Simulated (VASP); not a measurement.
# Conduction-valley splitting of BAs (F-43m) under uniaxial [001] stress, from TB-mBJ with spin-orbit coupling on LDA-relaxed cells

In a transistor channel made of a semiconductor with several equivalent conduction valleys, stress decides which valleys hold the electrons, and so which effective mass carries the current. Cubic BAs, of interest for electronics because it conducts heat very well, has six such valleys along the Γ–X lines. Stress along [001] separates the two on the stress axis from the four along [100] and [010]. We calculate how far apart they move and which set lies lower. The splitting is the energy of the [100] valley less that of the [001] valley, so a positive value means that [001] is lower. The separate valley energies are counted from the valence-band top at the zone centre. All values are computed; no measured splitting is compared here.

## How the numbers were made

The start is a typed prototype cell. The crystal was relaxed with LDA. Strain is imposed along [001]; the strain across the axis is adjusted until the stress across it vanishes, and the atoms are relaxed with LDA. VASP 6.6.1, plane waves with PAW, cutoff 480 eV, no spin polarisation. Band edges are single points at TB-mBJ with spin-orbit coupling on these cells, k mesh 9×9×9, read on short lines of k points at the zone centre and through the valleys; energies are counted from the valence-band top at the zone centre.  All levels use the PAW data sets made with LDA.

Notes on method and selection:

- A valley's energy from the valence-band top holds the shift of that top as well as the shift of the valley.
- The TB-mBJ parameter c is fixed anew from the density of each cell, so it changes along the series.
- Runs that did not converge, have known faults or may not be shown are not listed, and runs on Ansatz's PAW sets soft_1 and soft_2 are kept to separate tables.

Columns:

- strain (%): strain along the axis (tension positive).
- splitting (eV): valley along [100] less valley along [001].
- Δ [001] (eV): minimum of the conduction band along Γ–X in the [001] direction.
- Δ [100] (eV): minimum of the conduction band along Γ–X in the [100] direction.
- L [111] (eV): conduction level at L along [111].
- Γ level (eV): lowest conduction level at Γ.

## Data

| member | strain (%) | splitting (eV) | Δ [001] (eV) | Δ [100] (eV) | L [111] (eV) | Γ level (eV) |
| --- | --- | --- | --- | --- | --- | --- |
| −2 % | −2.0 | 0.323 | 1.305 | 1.627 | 3.200 | 3.476 |
| −1.5 % | −1.5 | 0.240 | 1.401 | 1.641 | 3.240 | 3.523 |
| −1 % | −1.0 | 0.159 | 1.494 | 1.653 | 3.273 | 3.564 |
| −0.5 % | −0.5 | 0.079 | 1.583 | 1.662 | 3.296 | 3.598 |
| 0 % | 0.0 | 0.000 | 1.665 | 1.665 | 3.309 | 3.622 |
| +0.5 % | 0.5 | −0.077 | 1.699 | 1.622 | 3.268 | 3.596 |
| +1 % | 1.0 | −0.153 | 1.732 | 1.579 | 3.223 | 3.568 |
| +1.5 % | 1.5 | −0.228 | 1.765 | 1.537 | 3.173 | 3.539 |
| +2 % | 2.0 | ? | ? | ? | ? | ? |

Cells marked ? are withheld until the estimate has been made.

splitting (eV) against strain (%), members shown:

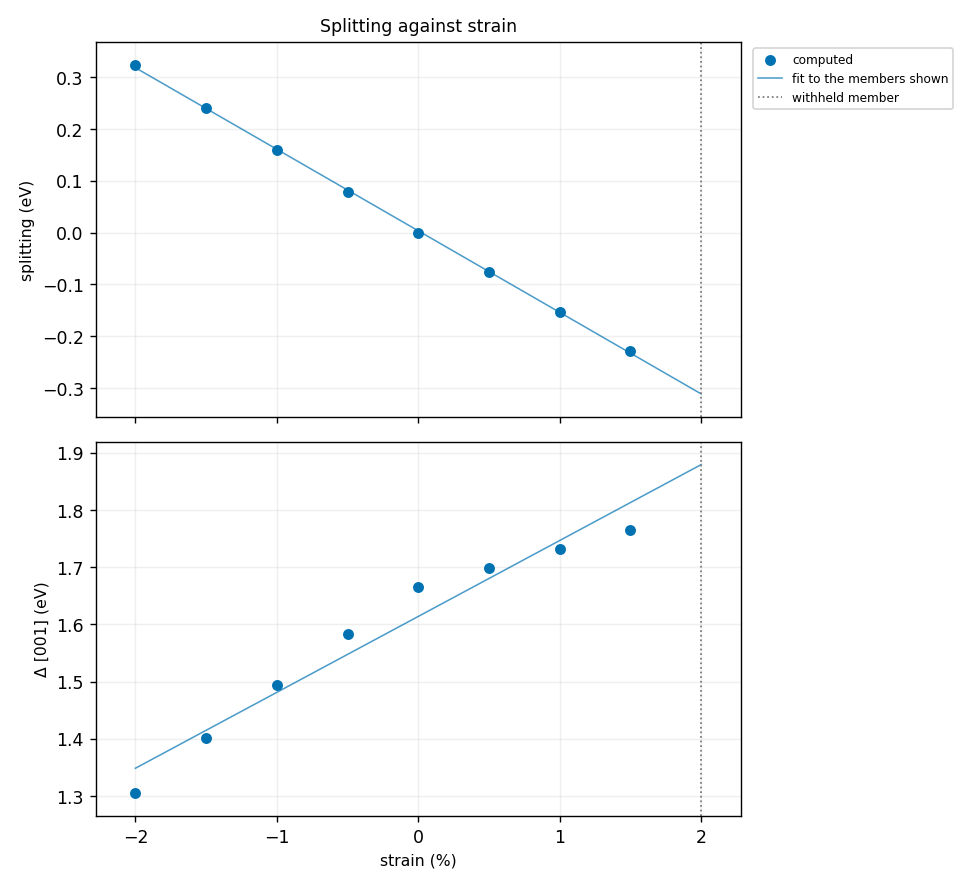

Least-squares fits to the members shown, with x = strain (%); R² and errors in the fitted variable (y, or ln y where the fit is in ln y):

| y | members | fit | R² | rms residual | leave-one-out rms | the same for the mean of the others |
| --- | --- | --- | --- | --- | --- | --- |
| splitting (eV) | 8 | y = 0.003536 − 0.1574 x | 1.00 | 0.0030 | 0.0046 | 0.21 |
| Δ [001] (eV) | 8 | y = 1.614 + 0.1327 x | 0.95 | 0.034 | 0.049 | 0.18 |

## Reading the trend

Under compression the two valleys along [001] are lowest; under tension the four along [100] and [010] are. The splitting falls at every step from 0.323 eV at −2 % to −0.228 eV at +1.5 %. Around zero strain its slope is (−0.077 − 0.079) / 1.0 = −0.156 eV per % of strain. Half a per cent of either sign thus separates the valleys by about three times the thermal energy at room temperature (roughly 0.026 eV).

A nearly-free-electron picture accounts for the sign. Near X, the lowest conduction state of the [001] valley is built largely from waves that vary across the axis. Compression along [001] widens the crystal across the axis, which lowers their kinetic energy. The corresponding waves of the [100] valley vary partly along the shortened axis and rise. With $c$ the cell length along [001], this part of the energy goes as $1/c^2$, and its slope as $1/c^3$. The steps in splitting should therefore shrink towards tension. In units of its unstrained length, $c$ is 1 − (0.020 + 0.015) / 2 = 0.9825 at the middle of the first step and 1 + (0.010 + 0.015) / 2 = 1.0125 at the middle of the last. With the smaller change across the axis neglected, the last step should be (0.9825 / 1.0125)³ = 0.91 of the first. The table gives (0.228 − 0.153) / (0.323 − 0.240) = 0.90.

The separate valley energies behave less simply. The [001] valley rises by 1.665 − 1.583 = 0.082 eV over the last half per cent of compression before zero, but by only 1.699 − 1.665 = 0.034 eV over the first half per cent of tension. This drop in step, 0.082 − 0.034 = 0.048 eV, recurs in the other three levels at roughly 0.05 eV. A kink common to four different conduction levels points to their shared zero of energy. The upper two valence levels split under either sign of strain, and the higher one becomes the new top. The valley splitting is free of this effect, because the valence-band top cancels in the difference.

## Prediction

Plain estimates from the members shown:

- +2 %, fit at x = 2.0: −0.311 eV (an extrapolation)

The straight-line fit gives −0.311 eV at +2 %, but the data are slightly bowed. The fit lies below the computed splitting at both ends of the series and above it at zero strain, so its extrapolation should come out too negative. We therefore continue the last three members with a constant change of step, which keeps the curvature expected from the $1/c^2$ dependence:

$$s_{+2} = 3s_{+1.5} - 3s_{+1} + s_{+0.5}$$

In numbers, 3 × (−0.228) − 3 × (−0.153) + (−0.077) = −0.302 eV.

The same rule, applied to the three members on the compressive side of each target, can be tried on five shown members. It gives 3 × 0.159 − 3 × 0.240 + 0.323 = 0.080 eV at −0.5 % (table 0.079), 0.000 at zero strain (0.000), −0.078 at +0.5 % (−0.077), 3 × (−0.077) − 3 × 0.000 + 0.079 = −0.152 at +1 % (−0.153) and −0.228 at +1.5 % (−0.228). The rms miss is 0.0008 eV, against 0.0046 eV for the straight line when members are left out in turn.

No further shift is added. The kink at zero strain belongs to the valence-band top and does not enter the splitting, and the steps on the tensile side change smoothly. We round the rms miss up to 0.001 eV for the error bar. The four valleys along [100] and [010] should remain lowest at +2 %.

**Committed estimate, +2 %: splitting = −0.302 ± 0.001 eV.**

## The withheld result

| member | strain (%) | splitting (eV) | Δ [001] (eV) | Δ [100] (eV) | L [111] (eV) | Γ level (eV) |
| --- | --- | --- | --- | --- | --- | --- |
| +2 % | 2.0 | −0.302 | 1.797 | 1.495 | 3.119 | 3.509 |

| member | estimate | splitting (eV) | computed | estimate − computed | miss in error bars |
| --- | --- | --- | --- | --- | --- |
| +2 % | committed | −0.302 | −0.302 | 0.000 | 0.0 |
| +2 % | fit | −0.311 | −0.302 | −0.009 |  |

splitting (eV) against strain (%):

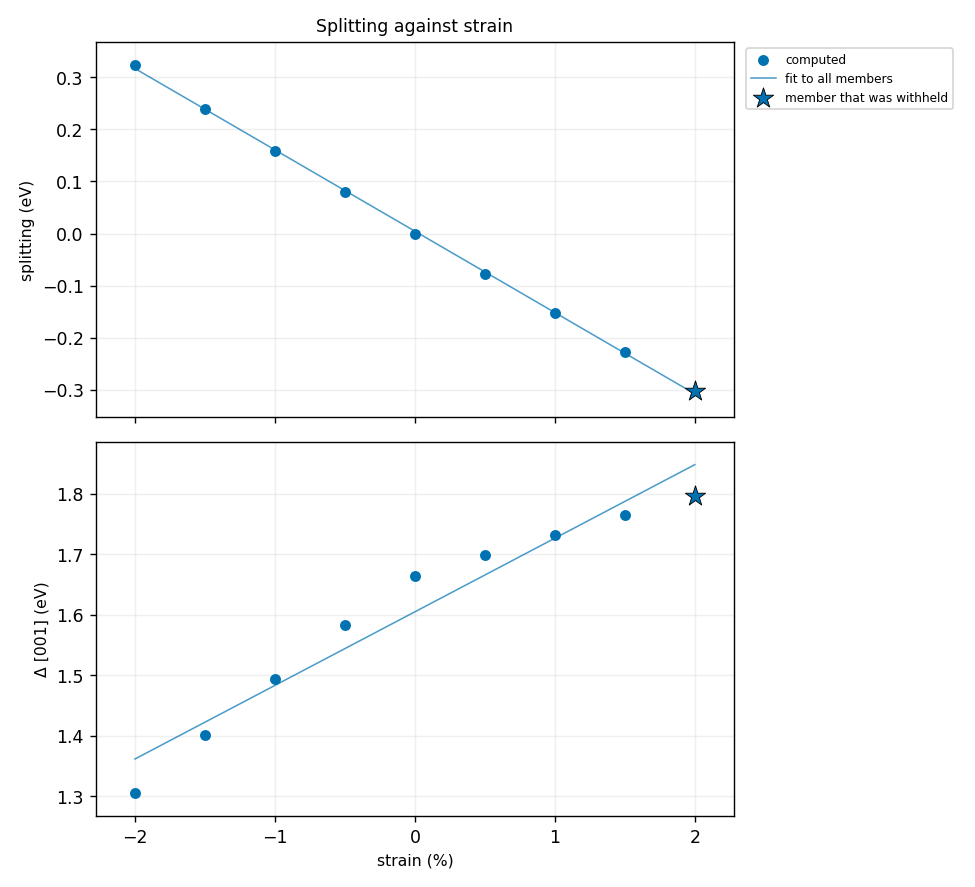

The estimate of −0.302 eV agrees with the computed splitting to the last printed digit, well inside its error bar of 0.001 eV. Rounding of the three splittings used can by itself shift the estimate by about 0.001 eV, so agreement this close was not assured. The straight-line fit gave −0.311 eV, too negative by 0.009 eV, as expected from the bow in the data.

The argument for keeping the curvature held. The last step is 0.302 − 0.228 = 0.074 eV, against 0.323 − 0.240 = 0.083 eV for the first, a ratio of 0.074 / 0.083 = 0.89. The middle of the last step is now at 1 + (0.015 + 0.020) / 2 = 1.0175, and the $1/c^3$ slope gives (0.9825 / 1.0175)³ = 0.90 when the change across the axis is neglected. This fits the kinetic-energy picture, but the three-point rule would follow any smooth curve equally well, so its success is a test of smoothness more than of the mechanism. The [100] and [010] valleys remain lowest at +2 %, as predicted.

## Departures from the trend

Least-squares fits to the whole series, with x = strain (%); R² and errors in the fitted variable (y, or ln y where the fit is in ln y):

| y | members | fit | R² | rms residual | leave-one-out rms | the same for the mean of the others |
| --- | --- | --- | --- | --- | --- | --- |
| splitting (eV) | 9 | y = 0.004556 − 0.1561 x | 1.00 | 0.0037 | 0.0053 | 0.23 |
| Δ [001] (eV) | 9 | y = 1.605 + 0.1217 x | 0.94 | 0.038 | 0.053 | 0.18 |

Largest departures from the fit to the whole series:

| member | splitting (eV) | fit | computed − fit | in rms residuals |
| --- | --- | --- | --- | --- |
| −2 % | 0.323 | 0.317 | +0.006 | 1.7 |
| +2 % | −0.302 | −0.308 | +0.006 | 1.5 |
| 0 % | 0.000 | 0.005 | −0.005 | 1.2 |
| −0.5 % | 0.079 | 0.083 | −0.004 | 1.0 |

No single strain stands out. The computed splitting lies 0.006 eV above the straight line at both −2 % and +2 %, and 0.005 eV below it at zero strain, which is the pattern a line leaves when drawn through a gently curved series. The departures therefore reflect the shrinking steps in splitting and need no separate cause for each member.

## What to take away

Between −2 % and +2 %, compression along [001] puts the two [001] valleys lowest and tension puts the four [100] and [010] valleys lowest. Interpolation between neighbouring rows should give the splitting to about 0.001 eV at this level of theory.

A splitting of 0.1 eV takes 0.5 + 0.5 × (0.1 − 0.079) / (0.159 − 0.079) = 0.63 % compression, or 0.5 + 0.5 × (0.1 − 0.077) / (0.153 − 0.077) = 0.65 % tension. At room temperature the Boltzmann factor is then exp(−0.1 / 0.026) = 0.02. At low electron density and with equal densities of states per valley, the upper valleys hold about 4 % of the electrons under compression (four above two) and 1 % under tension (two above four).

We know of no omitted effect as large as the spread of the splitting, 0.323 + 0.302 = 0.625 eV. Lattice vibrations lower the gap, but the shift is the same for all six valleys in the unstrained crystal and should largely cancel between them at small strain.
